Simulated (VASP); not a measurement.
# Splitting of the Δ valleys of Si under biaxial strain in the (110) plane, TB-mBJ with spin-orbit coupling on LDA geometries

Compressing silicon by 2 % in the (110) plane separates its conduction valleys by 0.234 eV, while stretching it by the same amount separates them by only 0.059 eV, with the opposite sign. If each valley simply shifted in proportion to the strain, the two numbers would be equal in size. The difference matters for strained channels, because the valleys that lie lowest hold the electrons and so set their effective mass along the current and their scattering between valleys. We follow the valley along [001], the cube axis lying in the strained plane, and the valley along [100], which is equivalent to [010] and inclined to that plane. The splitting is the [100] energy less the [001] energy, so a positive value means that [001] is lowest.

## Set-up

The start is a typed prototype cell. The crystal was relaxed with LDA. Equal strain is imposed in the (110) plane; the strain along the normal is adjusted until the normal stress vanishes, and the atoms are relaxed with LDA. VASP 6.6.1, plane waves with PAW, cutoff 450 eV, no spin polarisation. Band edges are single points at TB-mBJ with spin-orbit coupling on these cells, k mesh 8×8×8, read on short lines of k points at the zone centre and through the valleys; energies are counted from the valence-band top at the zone centre.  All levels use the PAW data sets made with LDA.

Notes on method and selection:

- A valley's energy from the valence-band top holds the shift of that top as well as the shift of the valley.
- The TB-mBJ parameter c is fixed anew from the density of each cell, so it changes along the series.
- Runs that did not converge, have known faults or may not be shown are not listed, and runs on Ansatz's PAW sets soft_1 and soft_2 are kept to separate tables.

Columns:

- strain (%): strain in the plane (tension positive).
- splitting (eV): valley along [100] less valley along [001].
- Δ [001] (eV): minimum of the conduction band along Γ–X in the [001] direction.
- Δ [100] (eV): minimum of the conduction band along Γ–X in the [100] direction.
- L [111] (eV): conduction level at L along [111].
- L [-111] (eV): conduction level at L along [-111].
- Γ level (eV): lowest conduction level at Γ.

## Results

| member | strain (%) | splitting (eV) | Δ [001] (eV) | Δ [100] (eV) | L [111] (eV) | L [-111] (eV) | Γ level (eV) |
| --- | --- | --- | --- | --- | --- | --- | --- |
| −2 % | −2.0 | 0.2339 | 0.857 | 1.090 | 2.401 | 2.031 | 2.934 |
| −1.5 % | −1.5 | 0.1564 | 0.972 | 1.128 | 2.369 | 2.100 | 3.005 |
| −1 % | −1.0 | 0.0913 | 1.071 | 1.162 | 2.333 | 2.160 | 3.071 |
| −0.5 % | −0.5 | 0.0397 | 1.153 | 1.193 | 2.296 | 2.212 | 3.133 |
| 0 % | 0.0 | 0.0000 | 1.220 | 1.220 | 2.255 | 2.255 | 3.177 |
| +0.5 % | 0.5 | −0.0295 | 1.215 | 1.185 | 2.153 | 2.230 | 3.107 |
| +1 % | 1.0 | ? | ? | ? | ? | ? | ? |
| +1.5 % | 1.5 | −0.0579 | 1.157 | 1.099 | 1.935 | 2.150 | 2.921 |
| +2 % | 2.0 | −0.0593 | 1.117 | 1.058 | 1.828 | 2.103 | 2.830 |

Cells marked ? are withheld until the estimate has been made.

splitting (eV) against strain (%), members shown:

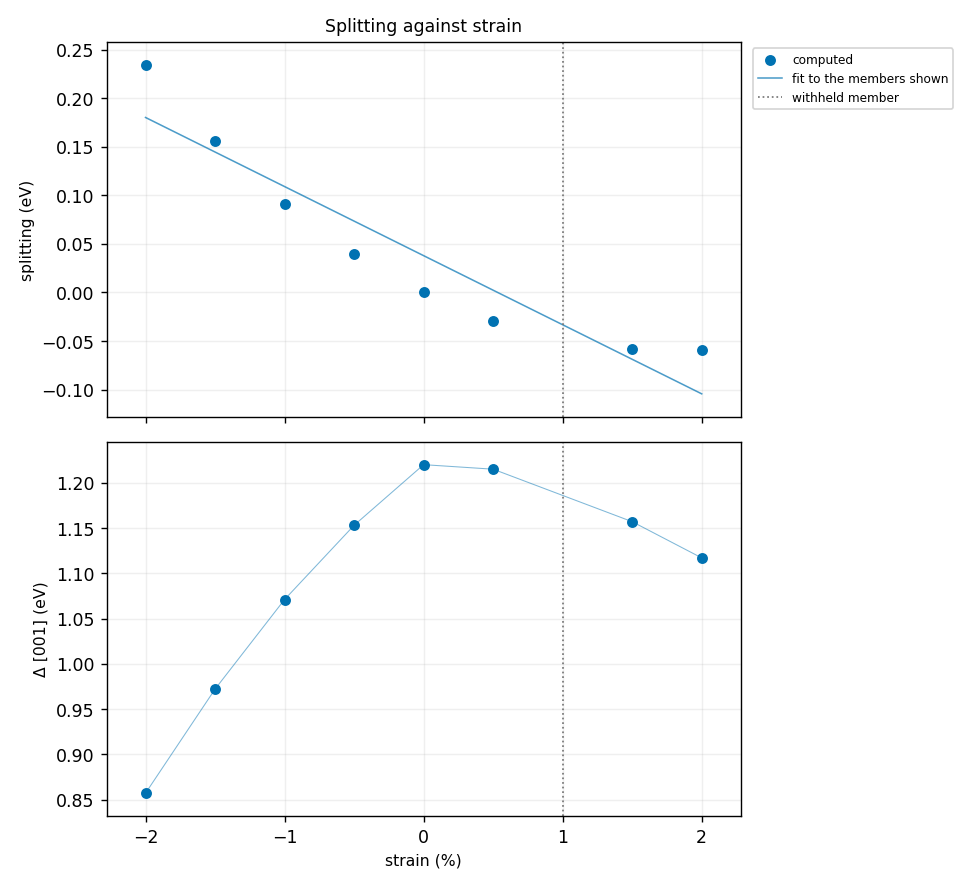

Least-squares fits to the members shown, with x = strain (%); R² and errors in the fitted variable (y, or ln y where the fit is in ln y):

| y | members | fit | R² | rms residual | leave-one-out rms | the same for the mean of the others |
| --- | --- | --- | --- | --- | --- | --- |
| splitting (eV) | 8 | y = 0.03793 − 0.07113 x | 0.89 | 0.034 | 0.050 | 0.11 |
| Δ [001] (eV) | 8 | y = 1.103 + 0.06146 x | 0.48 | 0.085 | 0.12 | 0.13 (fit hardly better) |

## Reading the trend

Under compression the pair of valleys along ±[001] is lowest; under tension it is the four along ±[100] and ±[010]. In every row shown the L and Γ levels lie higher than both kinds of Δ valley.

The sign follows from the uniaxial deformation potential Ξu, which is positive for the Δ valleys of silicon: a valley drops when its own axis is shortened relative to the others. The [001] axis takes the full in-plane strain ε∥, whereas [100] takes the mean of ε∥ and the strain ε⊥ along the normal. To first order the splitting is therefore Ξu(ε⊥ − ε∥)/2, which is positive under compression, when the normal expands.

This term changes sign with the strain, but the computed splitting has a second part that does not. At 2 % the part odd in strain has the size (0.2339 + 0.0593)/2 = 0.1466 eV, and the even part is (0.2339 − 0.0593)/2 = 0.0873 eV. Between 1.5 % and 2 % the even part grows by a factor (0.2339 − 0.0593)/(0.1564 − 0.0579) = 1.77, close to the (2.0/1.5)² = 1.78 of a quadratic term.

Theory supplies the cause. Strain in the (110) plane also shears the cube face normal to [001]. That shear couples the two conduction bands that meet at X on the [001] axis, pushing the lower one down whichever way the shear goes and moving its minimum towards X. Such a move is found here under compression. The [100] and [010] valleys do not feel this shear in the same way. The extra lowering of [001] thus adds to the splitting under compression and works against it under tension, where the splitting almost levels off between +1.5 % and +2 %.

Both valley energies are highest in the unstrained cell. Part of their fall on either side comes from the valence-band top, which rises as its two highest levels separate; this common shift cancels in the splitting.

## An estimate before looking

Plain estimates from the members shown:

- +1 %, fit at x = 1.0: −0.0332 eV
- +1 %, straight-line interpolation between +0.5 % and +1.5 %: w = (1.0 − 0.5) / (1.5 − 0.5) = 0.500, so −0.0295 + 0.500 × (−0.0579 − (−0.0295)) = −0.0437 eV

The straight-line fit is unsuitable for +1 %: it gives 0.038 eV at zero strain, where symmetry requires zero. Interpolation between the two neighbours is better, but the splitting curves upwards with strain, so a chord lies above it and −0.0437 eV should be too small in size.

We therefore pass a cubic through the four nearest members on the tension side, zero strain included. For a point midway between evenly placed neighbours, with the next pair twice as far away, the weights are 2/3 for each inner member and −1/6 for each outer one:

(2/3) × (−0.0295 − 0.0579) − (1/6) × (0.0000 − 0.0593) = −0.0484 eV.

The same formula can be tried on two members under compression. At −1 % it gives (2/3) × (0.1564 + 0.0397) − (1/6) × (0.2339 + 0.0000) = 0.0917 eV, against 0.0913 eV in the table. At −0.5 %, from the members at −1.5, −1, 0 and +0.5 %, it gives 0.0397 eV, equal to the tabulated value.

The mechanism calls for no further shift, since the linear and quadratic terms are both contained in a cubic. We take the error from the larger of the two misses, rounded up to 0.0005 eV. The [100] and [010] valleys should then be lowest at +1 %.

**Committed estimate, +1 %: splitting = −0.0484 ± 0.0005 eV.**

## The answer

| member | strain (%) | splitting (eV) | Δ [001] (eV) | Δ [100] (eV) | L [111] (eV) | L [-111] (eV) | Γ level (eV) |
| --- | --- | --- | --- | --- | --- | --- | --- |
| +1 % | 1.0 | −0.0490 | 1.191 | 1.142 | 2.044 | 2.192 | 3.014 |

| member | estimate | splitting (eV) | computed | estimate − computed | miss in error bars |
| --- | --- | --- | --- | --- | --- |
| +1 % | committed | −0.0484 | −0.0490 | +0.0006 | 1.2 |
| +1 % | fit | −0.0332 | −0.0490 | +0.0158 |  |
| +1 % | interpolation | −0.0437 | −0.0490 | +0.0053 |  |

splitting (eV) against strain (%):

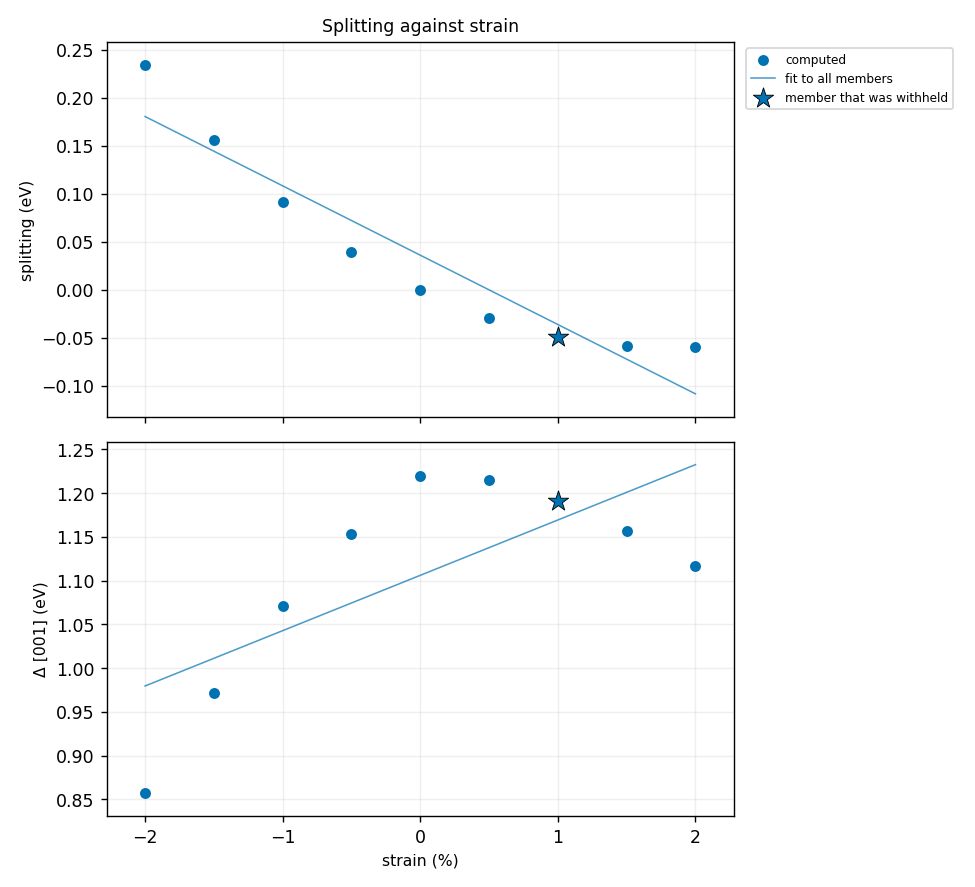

The estimate of −0.0484 eV lies 0.0006 eV above the computed −0.0490 eV, just outside its error bar. It is still much closer than the straight-line interpolation, which misses by 0.0053 eV, or the fit, which misses by 0.0158 eV. The curvature argument held in sign and nearly in full size, and the [100] and [010] valleys are lowest, as expected. The error bar was somewhat too narrow, as it rested on only two trials, both under compression.

With both members at 1 % known, the part of the splitting that keeps its sign when the strain is reversed is (0.0913 − 0.0490)/2 = 0.0212 eV. A quarter of the corresponding part at 2 % is 0.0873/4 = 0.0218 eV, so growth with the square of the strain holds here too. That is what the shear coupling of the two bands at X gives to lowest order.

## Members off the line

Least-squares fits to the whole series, with x = strain (%); R² and errors in the fitted variable (y, or ln y where the fit is in ln y):

| y | members | fit | R² | rms residual | leave-one-out rms | the same for the mean of the others |
| --- | --- | --- | --- | --- | --- | --- |
| splitting (eV) | 9 | y = 0.03618 − 0.07218 x | 0.89 | 0.032 | 0.046 | 0.11 |
| Δ [001] (eV) | 9 | y = 1.106 + 0.06323 x | 0.51 | 0.080 | 0.11 | 0.13 |

Largest departures from the fit to the whole series:

| member | splitting (eV) | fit | computed − fit | in rms residuals |
| --- | --- | --- | --- | --- |
| −2 % | 0.2339 | 0.1805 | +0.0534 | 1.7 |
| +2 % | −0.0593 | −0.1082 | +0.0489 | 1.5 |
| 0 % | 0.0000 | 0.0362 | −0.0362 | 1.1 |
| −0.5 % | 0.0397 | 0.0723 | −0.0326 | 1.0 |

The largest departures come from fitting a straight line to a curved series, and no single member is at fault. Both ends lie above the line, −2 % by 0.0534 eV and +2 % by 0.0489 eV, while 0 % and −0.5 % lie below it by 0.0362 and 0.0326 eV.

A quadratic term of 0.0212 eV per (%)² accounts for these sizes. The mean of x² over the nine members is 2 × (4 + 2.25 + 1 + 0.25) / 9 = 1.67, so a straight line absorbs 0.0212 × 1.67 = 0.035 eV as a constant. What remains is 0.0212 × 4 − 0.035 = +0.050 eV at either end and −0.035 eV at zero strain, close to the listed departures.

The −2 % member stands slightly higher than this. Its normal expands by a little more than in proportion to the in-plane strain, which increases the splitting and so has the right sign.

## Conclusions and limits

The two members at 1 % give an odd part of size (0.0913 + 0.0490)/2 = 0.0702 eV, beside the even part of 0.0212 eV. Between −2 % and +2 %, with the normal free of stress, the splitting in eV then follows −0.0702 x + 0.0212 x², with x the strain in %. On the other six strained members the rms miss is 0.004 eV, against 0.11 eV for the mean of the others over the whole series; the largest miss is 0.009 eV, at −2 %.

At +1 % and room temperature, where the thermal energy is roughly 0.026 eV, each [001] valley holds about exp(−0.0490/0.026) = 0.15 times the electrons of a [100] valley, if their masses are taken as equal. The two upper valleys then hold 2 × 0.15/(4 + 2 × 0.15) = 0.07 of the electrons.

The splitting spans 0.2339 + 0.0593 = 0.2932 eV over the series, and we know of no omitted effect as large as that. Lattice vibrations, zero-point motion included, lower the gap by roughly 0.1 eV at room temperature, but most of that is common to both kinds of valley.
